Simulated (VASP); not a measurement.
# Smearing width and scheme in fcc Cu: drift of free energy, extrapolated energy and pressure at LDA

A common rule of thumb says that a smearing width is safe for a metal as long as the smearing term stays below about 1 meV per atom. The rule matters because a wide smearing steadies the sum over k points, while it also changes the energy and the pressure that are being sought. Here fcc Cu is run at fixed cell and fixed k mesh with two schemes and five widths each. Errors are counted from the Gaussian run at 0.01 eV, which is a common zero and not the converged answer: on this mesh it has a sampling error of its own.

## Set-up

One crystal without a Kohn-Sham gap, Cu (fcc) (known phase), at LDA; single-point runs at fixed cell and atoms on one k mesh (11×11×11), only the smearing changed. Program: VASP 6.6.1, plane waves and PAW (data sets made for PBE of release 64), scalar-relativistic without spin-orbit coupling, no spin polarisation. Cutoff 400 eV; on the k meshes the divisions times the cell-vector length are 28 Å or more.

Notes on method and selection:

- For Gaussian or Fermi-Dirac smearing the free energy falls as σ² times the density of states at the Fermi level; Methfessel-Paxton schemes cancel the leading order.
- At the smallest widths the mesh is too coarse for the step in the occupations, so the reference carries its own sampling error.
- Runs that did not converge, have known faults or may not be shown are not listed, and runs on Ansatz's PAW sets soft_1 and soft_2 are kept to separate tables.

Columns:

- width (eV): smearing width SIGMA.
- free-energy error (meV/atom): free energy per atom minus that of the run with Gaussian smearing of 0.01 eV.
- energy error (meV/atom): energy per atom, extrapolated to zero smearing as the program prints it, minus that of the run with Gaussian smearing of 0.01 eV.
- pressure error (GPa): pressure minus that of the run with Gaussian smearing of 0.01 eV, compression positive.
- smearing term (meV/atom): free energy minus the extrapolated energy, per atom.

## The series

```
member       scheme                          width (eV)  free-energy error (meV/atom)  energy error (meV/atom)  pressure error (GPa)  smearing term (meV/atom)
σ = 0.01 eV  Gaussian                        0.01        0.000                         0.000                    0.0000                −0.006
σ = 0.05 eV  Gaussian                        0.05        −0.051                        −0.026                   −0.0029               −0.032
σ = 0.1 eV   Gaussian                        0.10        −0.194                        0.122                    −0.0007               −0.322
σ = 0.2 eV   Gaussian                        0.20        −1.645                        0.500                    0.0298                −2.152
σ = 0.5 eV   Gaussian                        0.50        −14.810                       2.003                    0.2949                −16.819
σ = 0.01 eV  Methfessel-Paxton, first order  0.01        0.017                         0.009                    0.0000                0.001
σ = 0.05 eV  Methfessel-Paxton, first order  0.05        −0.033                        −0.086                   −0.0161               0.046
σ = 0.1 eV   Methfessel-Paxton, first order  0.10        0.145                         −0.058                   −0.0123               0.196
σ = 0.2 eV   Methfessel-Paxton, first order  0.20        0.519                         0.369                    −0.0218               0.143
σ = 0.5 eV   Methfessel-Paxton, first order  0.50        2.178                         1.015                    0.0529                1.156
```

free-energy error (meV/atom) against width (eV):

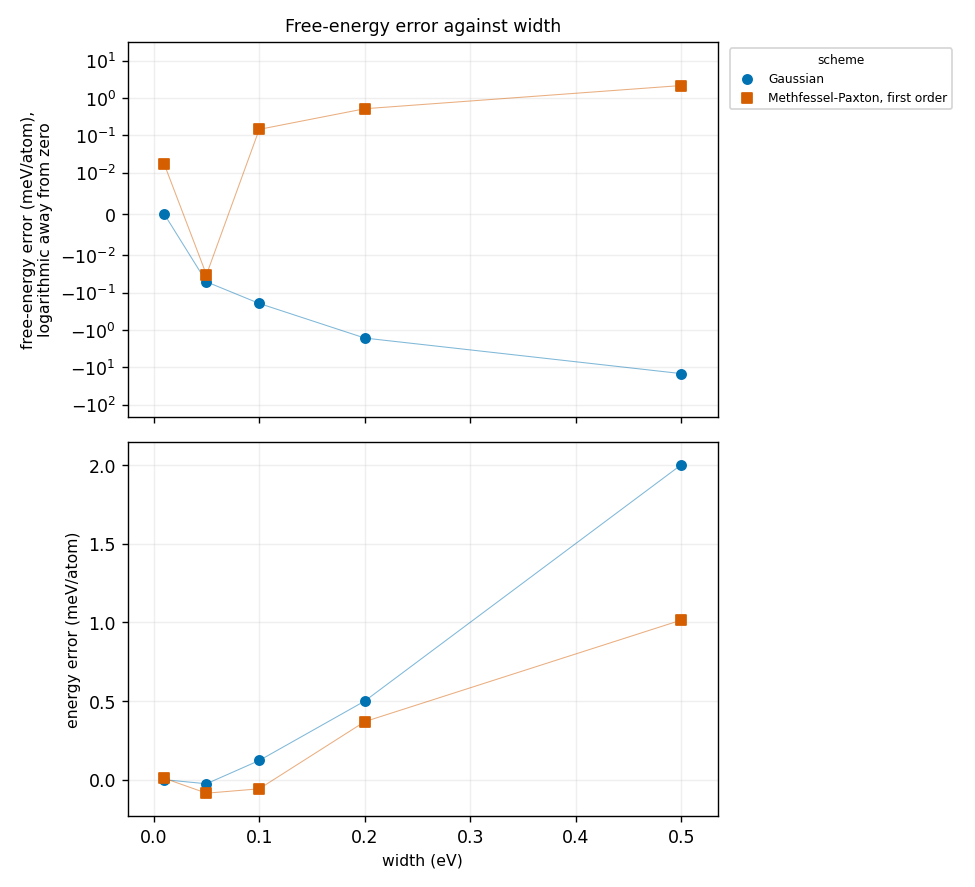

## What drives the series

With Gaussian smearing the free energy falls at every step in width, to −14.810 meV/atom at 0.5 eV. With first-order Methfessel-Paxton smearing it ends at +2.178 meV/atom. The extrapolated energies stay within 0.5 meV/atom of the reference up to 0.2 eV in both schemes.

A model with two parameters follows from three assumptions: the levels do not move with the width σ, they are dense on the scale of σ, and their density g (per eV and atom, both spins) is constant near the Fermi level ε_F.

1. Gaussian smearing replaces the step in the occupations by ½ erfc(x), with x = (ε − ε_F)/σ. Lifting electrons across ε_F costs gσ²/4.
2. The entropy-like term is −σ exp(−x²)/(2√π) for each level, which integrates to −gσ²/2.
3. The sum is −gσ²/4. With a constant a for the offset of the reference, the free-energy error is ΔF = a − bσ², where b = g/4.

For Gaussian smearing the extrapolated energy lies halfway between the energy with and without the entropy-like term, so the σ² part cancels. First-order Methfessel-Paxton smearing adds σ exp(−x²)/(4√π) per level to the Gaussian free energy, which is the same correction. Hence b = 0 for this scheme, and its free energy should equal the Gaussian extrapolated energy at the same width. The table bears this out: 0.519 against 0.500 meV/atom at 0.2 eV, and 2.178 against 2.003 at 0.5 eV.

The pressure is minus the volume derivative of the free energy, so Gaussian smearing adds (σ²/4) dg/dV, with V the volume per atom. Bands narrow on expansion, g grows, and the added pressure is positive, as found at 0.2 and 0.5 eV. Extrapolation mends the Gaussian energy but leaves this pressure in place: 0.2949 GPa at 0.5 eV, against 0.0529 GPa with Methfessel-Paxton smearing.

## The model against the table

The two parameters are fixed on the Gaussian runs at 0.01 and 0.2 eV. With energies in meV/atom and widths in eV:

b = (0.000 + 1.645) / (0.04 − 0.0001) = 41.23 meV/(atom eV²)

a = 0.000 + 41.23 × 0.0001 = 0.004 meV/atom

Four other runs then follow, each miss being table minus model:

- Gaussian, 0.05 eV: 0.004 − 41.23 × 0.0025 = −0.099 meV/atom. The table has −0.051, a miss of +0.048.
- Gaussian, 0.1 eV: 0.004 − 41.23 × 0.01 = −0.408 meV/atom. The table has −0.194, a miss of −0.194 + 0.408 = 0.214.
- Gaussian, 0.5 eV: 0.004 − 41.23 × 0.25 = −10.303 meV/atom. The table has −14.810, a miss of −14.810 + 10.303 = −4.507.
- Methfessel-Paxton, 0.5 eV: 0.004 − 0 × 0.25 = 0.004 meV/atom. The table has 2.178, a miss of 2.178 − 0.004 = 2.174.

For the other four Methfessel-Paxton runs the model again gives 0.004 meV/atom, and the largest miss among them is 0.519 − 0.004 = 0.515 meV/atom, at 0.2 eV. Over all eight runs not used to fix the parameters, the mean size of the miss is 0.96 meV/atom, against a mean deviation of 3.3 meV/atom about their own average. The model thus carries the main contrast between the schemes and the order of magnitude of the Gaussian fall. It is too crude for errors of a few tenths of a meV: at 0.1 eV it gives twice the tabulated fall.

## Departures from the trend

The largest miss, −4.507 meV/atom, is that of the Gaussian run at 0.5 eV. The assumption of dense levels is the first to fail. The smearing term gives an apparent density g = −4 × term/σ², which is 4 × 0.322 / 0.01 / 1000 = 0.129 per eV and atom at 0.1 eV, but 4 × 2.152 / 0.04 / 1000 = 0.215 at 0.2 eV and 4 × 16.819 / 0.25 / 1000 = 0.269 at 0.5 eV. A b fixed at 0.2 eV is therefore too small for the widest smearing. The Fermi energy, which also shifts irregularly at small widths, points to the same coarse sampling.

The Methfessel-Paxton run at 0.5 eV misses by +2.174 meV/atom. Here a density that curves upward around the Fermi level, as the d band below it may cause, would add +g″σ⁴/32, and it would lower the Gaussian free energy further. Such a term shrinks with the fourth power of the width, whose ratio is 0.2 / 0.5 = 0.4. That leaves 2.178 × 0.4 × 0.4 × 0.4 × 0.4 = 0.056 meV/atom at 0.2 eV, where the table has 0.519. Most of that smaller error more likely belongs to the sampling error of the reference. The same may hold for much of the miss at 0.5 eV, since a wide smearing averages out the sampling error of its own run but not that of the reference. The table cannot separate the two causes.

## Conclusions and limits

The rule of thumb separates the runs close to the reference from those further off, but it does not test the k mesh: runs with a small smearing term may share the sampling error of the reference. Where the smearing term is below 1 meV/atom in size, the free-energy error is at most 0.519 meV/atom; in the other three runs it is at least 1.645 in size. The pressure error divides the same way, though narrowly: at most 0.0218 GPa in size against at least 0.0298 GPa. This covers one mesh, and a further converged run of the series is not tabled.

Two effects that have nothing to do with smearing exceed the whole spread of 17 meV/atom and 0.32 GPa. Zero-point motion would add roughly +30 meV/atom and nearly +1 GPa. The overbinding of LDA makes the pressure at the measured volume too low by roughly 10 GPa.

[Logs are printed without paths, hosts, clocks, repeated set-up lines and the standing remarks that a program may print on its own settings, such as how far it seeks lower states.]
